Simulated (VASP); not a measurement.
# Wall time of one r2SCAN SCF run on ferromagnetic bcc Fe with eight solver and mixing settings in VASP

We calculate the ground state of bcc iron at fixed geometry eight times with r2SCAN, changing only the electronic solver (ALGO) or the density mixing (IMIX, AMIX, BMIX), and compare the wall times. Studies of magnetic alloys, steels and magnetic layers need many such runs, so a poor choice of solver is paid for many times over. A fast run is useful only if it reaches the same state, so we also follow the energy per atom. Times and energies are measured against the run with ALGO = Normal and default mixing. All eight runs end in the same ferromagnetic state with nearly equal moments.

## Computational details

A cell from a diffraction database. VASP 6.6.1, plane waves with PAW, r2SCAN, 1 atoms at fixed positions, collinear spin, no spin-orbit coupling. Held fixed: cutoff 400 eV, k mesh 9×9×9, ISMEAR = -1, SIGMA = 0.05 eV and 2 MPI ranks. Each row is named by the tags or value that set it apart; differences are taken from the run 'ALGO = Normal'. All ran on Intel(R) Xeon(R) Platinum 8488C (Sapphire Rapids), shared with other work, so times are rough.

Notes on method and selection:

- Runs that did not converge, have known faults or may not be shown are not listed, and runs on Ansatz's PAW sets soft_1 and soft_2 are kept to separate tables.

Columns:

- energy error (meV/atom): energy per atom extrapolated to zero smearing, less that of the reference (ALGO = Normal).
- cycles: SCF cycles.

Input lines of one member:

```
PREC = Accurate
ENCUT = 400
EDIFF = 1E-06
NELM = 100
ISMEAR = -1
SIGMA = 0.05
LREAL = .FALSE.
ALGO = Normal
METAGGA = R2SCAN
LASPH = .TRUE.
NBANDS = 10
ISPIN = 2
LMAXMIX = 4
LORBIT = 11
KPAR = 2
```

Command (options for logging and memory left out): `mpirun -np 2 vasp_std`

## Table of results

| member | energy error (meV/atom) | cycles | wall time (s) |
| --- | --- | --- | --- |
| ALGO = All | 0.001 | 19 | 54.0 |
| IMIX = 1, AMIX = 0.2 | 0.013 | 24 | 42.0 |
| AMIX = 0.8 | 0.000 | 23 | 35.0 |
| ALGO = Damped | 0.002 | 28 | 28.0 |
| ALGO = VeryFast | 0.000 | 22 | 26.0 |
| AMIX = 0.1, BMIX = 0.01 | 0.000 | 22 | 21.0 |
| ALGO = Normal | 0.000 | 15 | 17.4 |
| ALGO = Fast | 0.000 | 18 | 16.8 |

wall time (s) by member:

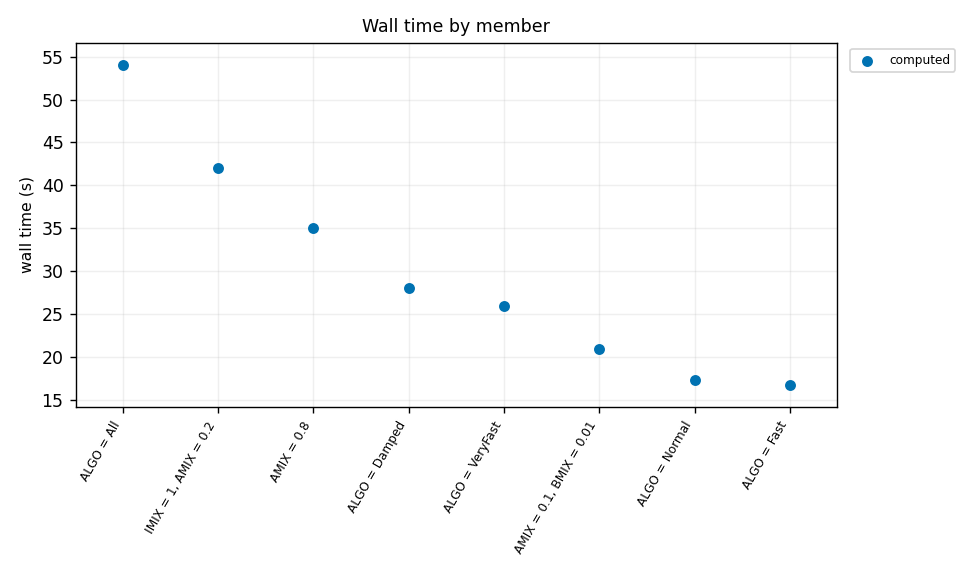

## Reading the trend

The wall time runs from 16.8 s with ALGO = Fast to 54.0 s with ALGO = All, a ratio of 54.0 / 16.8 = 3.2. The default run takes 17.4 s, and its distance from ALGO = Fast is too small to mean anything on shared hosts.

Wall time is the number of cycles multiplied by the time per cycle, plus a start-up share. The cycle count does not depend on the load of the host, and here the default is best with 15 cycles. The other runs need between 18 and 28.

Changing the mixing under ALGO = Normal raises the count to 22, 23 or 24. The default AMIX for a spin-polarised run is roughly 0.4, so both the larger and the smaller values tried here cost cycles. Strong damping of long-wavelength density changes, the usual reason to adjust BMIX, has little to act on in this cell. Kerker mixing scales each density component by

$$A\,\frac{G^2}{G^2+B^2},$$

with $A$ = AMIX and $B$ = BMIX. In a one-atom iron cell the shortest non-zero $G$ is roughly 3 Å⁻¹. With the default $B$ of about 1 Å⁻¹ the fraction is already 9 / (9 + 1) = 0.9, so lowering BMIX can change it by only about a tenth.

The time per cycle, taken here with the start-up share included, is much less certain. The four runs with ALGO = Normal do nearly the same work in each cycle, yet they take 17.4 / 15 = 1.16, 21.0 / 22 = 0.95, 35.0 / 23 = 1.52 and 42.0 / 24 = 1.75 s. This spread, a factor of about 1.8, is most likely due to other work on the hosts, and it sets the scale below which we read nothing into the times.

ALGO = Fast and VeryFast use RMM-DIIS, which saves time mainly by reducing orthogonalisation between bands. With only 10 bands there is little to save.

## Residuals

ALGO = All is the slowest run although its 19 cycles are fewer than those of five other runs. Each cycle takes 54.0 / 19 = 2.84 s, which is 2.84 / 1.16 = 2.4 times the default, but only 2.84 / 1.75 = 1.6 times the slowest of the ALGO = Normal runs, so host load alone cannot be ruled out. A likely reason within the method is the conjugate-gradient line search, which needs a trial step and a corrector step, each with a new evaluation of the energy. That would account for a factor of roughly two, and host load may have added the rest.

The run with plain Kerker mixing (IMIX = 1, AMIX = 0.2) stands out in quality as well as in time. Its energy lies 0.013 meV/atom above the reference, while no other run is off by more than 0.002 meV/atom. Its stress is also clearly apart from that of the other runs. Plain mixing moves the density by a small fraction of the residual and does not learn from earlier steps. The energy change per cycle can therefore fall below EDIFF while the density is still some way from self-consistency. Near the solution the energy error is of second order in the density error, whereas the stress error is of first order, so the stress shows the fault more plainly.

## Using the table

**Which setting should we take for a thousand single-point runs on cells like this one?**
With ALGO = Normal and default mixing, 1000 × 17.4 / 3600 = 4.8 hours. With ALGO = All, 1000 × 54.0 / 3600 = 15.0 hours. ALGO = Fast would serve equally well, but the default needs the fewest cycles and is the simplest choice.

**How much of the extra time with plain Kerker mixing comes from extra cycles?**
At the default time per cycle, 24 cycles would take 17.4 × 24 / 15 = 27.8 s. The extra cycles therefore explain 27.8 − 17.4 = 10.4 s of the total excess of 42.0 − 17.4 = 24.6 s. The remaining 24.6 − 10.4 = 14.2 s come from slower cycles, for which host load is the likely cause. On a quiet machine we would expect a penalty nearer to 24 / 15 = 1.6 than to the observed 42.0 / 17.4 = 2.4.

**Is the plain Kerker run good enough to use?**
For an energy difference wanted to 1 meV/atom it is, since its error is smaller by a factor of 1 / 0.013 = 77. For a cell relaxation or an equation of state taken from stresses it is not. There we would return to the default mixer or, if plain mixing must be kept, tighten EDIFF and check that the stress has settled.

## What to take away

For a one-atom ferromagnetic iron cell, the default solver and mixing are a sound choice, and none of the changes tried here brings a gain in time that we can distinguish from host load. ALGO = All took about three times as long for the same energy, though host load may account for part of that. Meeting EDIFF does not by itself guarantee a converged stress.

These findings should not be carried over to large cells, slabs or difficult magnetic orders. In large cells and slabs, small $G$ vectors make charge sloshing possible, and difficult magnetic orders can be slow to settle for reasons of their own. Careful mixing or direct minimisation can then decide whether a run converges at all.

The agreement between solvers says nothing about the accuracy of r2SCAN, which is known to make the moment of bcc iron too large. Spin-orbit coupling is left out; including it would add a small orbital moment and lengthen every run, because the orbitals become two-component spinors.

[Logs are printed without paths, hosts, clocks, repeated set-up lines and the standing remarks that a program may print on its own settings, such as how far it seeks lower states.]
